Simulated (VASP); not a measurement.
# Γ, L and Δ conduction valleys of GaSb (F-43m) against volume at HSE06

We calculate the lowest conduction level at Γ, the level at L and the minimum along Γ–X (Δ) in zinc-blende GaSb at nine volumes, from 6% below to 6% above the PBEsol-relaxed volume V₀. All energies are HSE06 values counted from the valence-band top at Γ, so each shift is that of the valley minus that of the valence top. The question is how fast each valley moves and whether their order changes. This matters for devices because the lowest valley decides whether the gap is direct, and the spacing to the next one decides how easily electrons leave the light Γ valley for heavier ones.

## How the numbers were made

The start is a typed prototype cell. The crystal was relaxed with PBEsol. It is scaled evenly about that cell, atoms relaxed with PBEsol. VASP 6.6.1, plane waves with PAW, cutoff 450 eV, no spin polarisation. Band edges are single points at HSE06 (no spin-orbit coupling) on these cells, k mesh 4×4×4, read on short lines of k points at the zone centre and through the valleys; energies are counted from the valence-band top at the zone centre.  All levels use the PAW data sets made with PBE.

Notes on method and selection:

- A valley's energy from the valence-band top holds the shift of that top as well as the shift of the valley.
- The gap closes at PBEsol in some of these cells, so their relaxation was done on a slightly metallic state; at fixed volume this leaves the geometry unchanged, as symmetry holds both atoms in place.
- Runs that did not converge, have known faults or may not be shown are not listed, and runs on Ansatz's PAW sets soft_1 and soft_2 are kept to separate tables.

Columns:

- 100 ln(V/V0): 100 ln(V/V0), V0 the volume of the reference cell.
- Γ level (eV): lowest conduction level at Γ.
- Δ valley (eV): minimum of the conduction band along Γ–X.
- L valley (eV): conduction level at L.
- Γ mass (mₑ): curvature mass of the lowest conduction band at Γ, fitted within 0.05 1/Å.

Input lines of one member:

```
PREC = Accurate
ENCUT = 450
EDIFF = 1E-06
NELM = 100
ISMEAR = 0
SIGMA = 0.02
LREAL = .FALSE.
ALGO = Normal
LHFCALC = .TRUE.
AEXX = 0.25
GGA = PE
HFSCREEN = 0.2
LASPH = .TRUE.
NBANDS = 14
PRECFOCK = Fast
```

Command (options for logging and memory left out): `mpirun -np 4 vasp_std`

## Computed values

| member | 100 ln(V/V0) | Γ level (eV) | Δ valley (eV) | L valley (eV) | Γ mass (mₑ) |
| --- | --- | --- | --- | --- | --- |
| V/V0 = 0.94 | −6.19 | 1.463 | 1.394 | 1.294 | 0.0643 |
| V/V0 = 0.955 | −4.60 | 1.327 | 1.419 | 1.250 | 0.0592 |
| V/V0 = 0.97 | −3.05 | 1.196 | 1.441 | 1.208 | 0.0541 |
| V/V0 = 0.985 | −1.51 | 1.066 | 1.462 | 1.166 | 0.0490 |
| V/V0 = 1 | 0.00 | 0.940 | 1.481 | 1.126 | 0.0441 |
| V/V0 = 1.015 | 1.49 | 0.817 | 1.499 | 1.087 | 0.0392 |
| V/V0 = 1.03 | 2.96 | 0.697 | 1.515 | 1.048 | 0.0345 |
| V/V0 = 1.045 | 4.40 | 0.580 | 1.530 | 1.011 | 0.0299 |
| V/V0 = 1.06 | 5.83 | 0.465 | 1.543 | 0.974 | 0.0256 |

Γ level (eV) against 100 ln(V/V0):

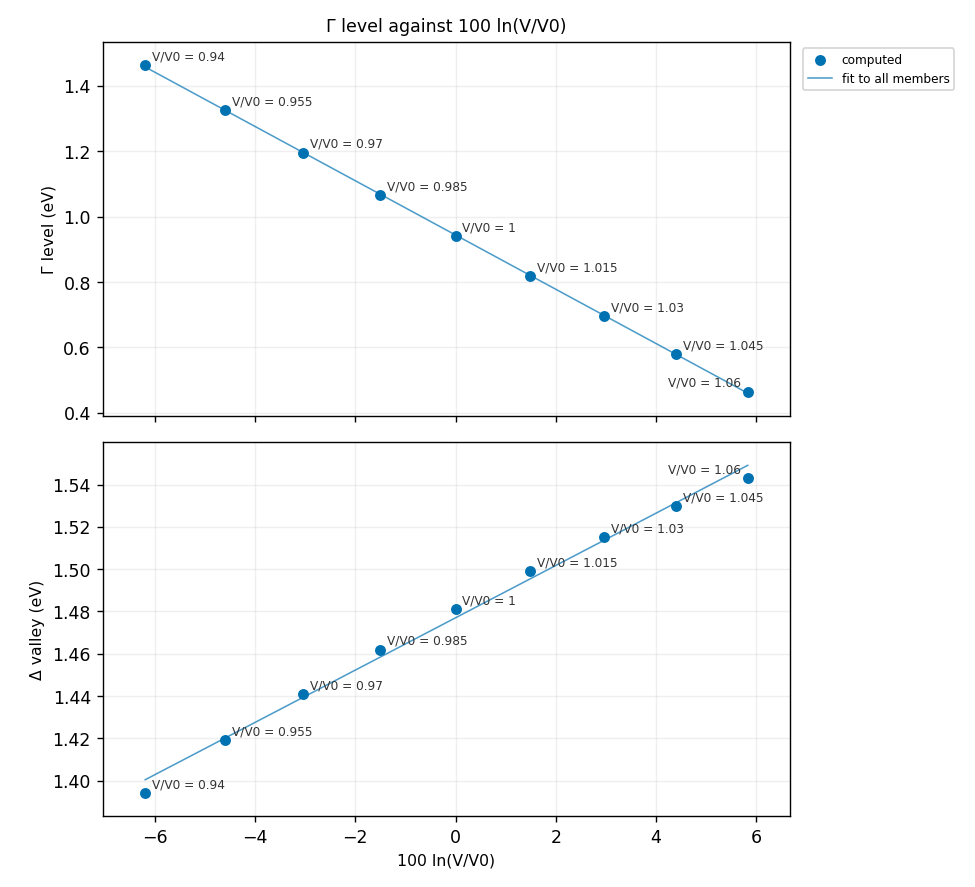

Least-squares fits to the whole series, with x = 100 ln(V/V0); R² and errors in the fitted variable (y, or ln y where the fit is in ln y):

| y | members | fit | R² | rms residual | leave-one-out rms | the same for the mean of the others |
| --- | --- | --- | --- | --- | --- | --- |
| Γ level (eV) | 9 | y = 0.9439 − 0.08303 x | 1.00 | 0.0033 | 0.0046 | 0.36 |
| Δ valley (eV) | 9 | y = 1.477 + 0.01238 x | 0.99 | 0.0038 | 0.0055 | 0.054 |

## Reading the trend

The order does change. At V₀ it is Γ, L, Δ from the bottom up, and the gap is direct. At V/V₀ = 0.955 L lies lowest, and at 0.94 Γ has risen above Δ as well. With x = 100 ln(V/V₀), close to the volume change in percent, Γ moves by −0.083 eV per unit of x and Δ by +0.012 (fitted slopes). L moves by (0.974 − 1.294) / (5.83 + 6.19) = −0.027 between the end rows.

The usual orbital picture accounts for the ranking. The Γ level is an antibonding combination of s orbitals, which rises steeply as the bond shortens, while the valence top is a bonding p state. The L state has less of this s–s antibonding character and rises less. Near X the s orbitals of neighbouring atoms do not couple by symmetry, so the main upward push is missing and Δ does not climb as the other two do. This alone does not explain why Δ falls slightly against the valence top on compression, since a bonding valence top that sinks would by itself make the spacing grow. Mixing of the Δ state with higher states, d-like ones among them, is a possible cause that the table cannot test.

A model with two parameters per valley follows in four steps.

1. The cell is scaled evenly and symmetry fixes both atoms, so the bond length d is the only variable, with d ∝ V^(1/3).
2. We assume that a valley energy has a part A that does not depend on d and a coupling part that follows one power of it: E = A + B (d/d₀)^(−n), where d₀ is the bond length at V₀. Since ln(d/d₀) = x/300, this is E = A + B exp(−nx/300).
3. For couplings between neighbours n is commonly taken as 2. The exponent is then only about 0.04 at the ends of the series, and the first-order term suffices: E ≈ E₀ + s x, with E₀ = A + B and s = −nB/300.
4. Two valleys i and j cross where their lines meet: x = (E₀ⱼ − E₀ᵢ)/(sᵢ − sⱼ).

## Testing the model

We fix the lines on V/V₀ = 0.97 (x = −3.05) and V/V₀ = 1.03 (x = 2.96), which are 6.01 apart. The slopes, in eV per unit of x, are

- Γ: (0.697 − 1.196) / 6.01 = −0.0830
- L: (1.048 − 1.208) / 6.01 = −0.0266
- Δ: (1.515 − 1.441) / 6.01 = +0.0123

V/V₀ = 0.94 lies 3.14 below the first fixed member in x:

- Γ: 1.196 + 0.0830 × 3.14 = 1.457 eV (table 1.463)
- L: 1.208 + 0.0266 × 3.14 = 1.292 eV (table 1.294)
- Δ: 1.441 − 0.0123 × 3.14 = 1.402 eV (table 1.394)

V/V₀ = 1 lies 3.05 above it:

- Γ: 1.196 − 0.0830 × 3.05 = 0.943 eV (table 0.940)
- L: 1.208 − 0.0266 × 3.05 = 1.127 eV (table 1.126)
- Δ: 1.441 + 0.0123 × 3.05 = 1.479 eV (table 1.481)

V/V₀ = 1.06 lies 8.88 above it:

- Γ: 1.196 − 0.0830 × 8.88 = 0.459 eV (table 0.465)
- L: 1.208 − 0.0266 × 8.88 = 0.972 eV (table 0.974)
- Δ: 1.441 + 0.0123 × 8.88 = 1.550 eV (table 1.543)

The crossings follow from the spacings at V/V₀ = 0.97. Γ meets L at x = −3.05 − (1.208 − 1.196) / (0.0830 − 0.0266) = −3.3, and Γ meets Δ at x = −3.05 − (1.441 − 1.196) / (0.0830 + 0.0123) = −5.6. Both fall between the rows where the tabulated order changes.

## Departures from the trend

Largest departures from the fit to the whole series:

| member | Γ level (eV) | fit | computed − fit | in rms residuals |
| --- | --- | --- | --- | --- |
| V/V0 = 1.06 | 0.465 | 0.460 | +0.005 | 1.6 |
| V/V0 = 0.94 | 1.463 | 1.458 | +0.005 | 1.6 |
| V/V0 = 1 | 0.940 | 0.944 | −0.004 | 1.2 |
| V/V0 = 0.985 | 1.066 | 1.069 | −0.003 | 1.0 |

The straight line fails by a few meV, in a regular way. For Γ the computed levels lie 0.005 eV above the fitted line at both ends and 0.004 eV below it at V₀, a bend of 0.009 eV. What fails is the cut after first order. The next term of the expansion is −s n x²/600, which for n = 2 and x = 6 gives 0.083 × 2 × 36 / 600 = 0.010 eV, with the right sign and size.

For Δ the bend is as large but of opposite sign, and it sits on a much smaller slope. Between V/V₀ = 0.94 and V₀ the slope is 0.087 / 6.19 = 0.0141 eV per unit of x; between V₀ and 1.06 it is 0.062 / 5.83 = 0.0106, a quarter less. A single power with n = 2 would allow a drop of only about 4%. Here a single power law with n = 2 fails. A likely reason is that the small Δ slope is what remains of larger shifts that nearly cancel, and these need not follow the same power of the bond length.

## What to take away

Within 6% of V₀ on either side, a straight line in ln V gives each valley to better than 0.01 eV. Compression by about 3% turns the direct gap into an indirect one with L lowest.

Spin–orbit coupling, which is left out, would raise the valence top and so lower all three energies by roughly 0.2 to 0.3 eV. That exceeds the whole spread of the Δ column (0.149 eV), though not that of Γ (0.998 eV). Being nearly common to the three valleys, it hardly touches their order.

The crossing volume is less certain than the slopes. An error of 0.1 eV in the L–Γ spacing, which is plausible for HSE06, would move that crossing by 0.1 / (0.0830 − 0.0266) = 1.8 units of x, or nearly 2% in volume.

[Logs are printed without paths, hosts, clocks, repeated set-up lines and the standing remarks that a program may print on its own settings, such as how far it seeks lower states.]
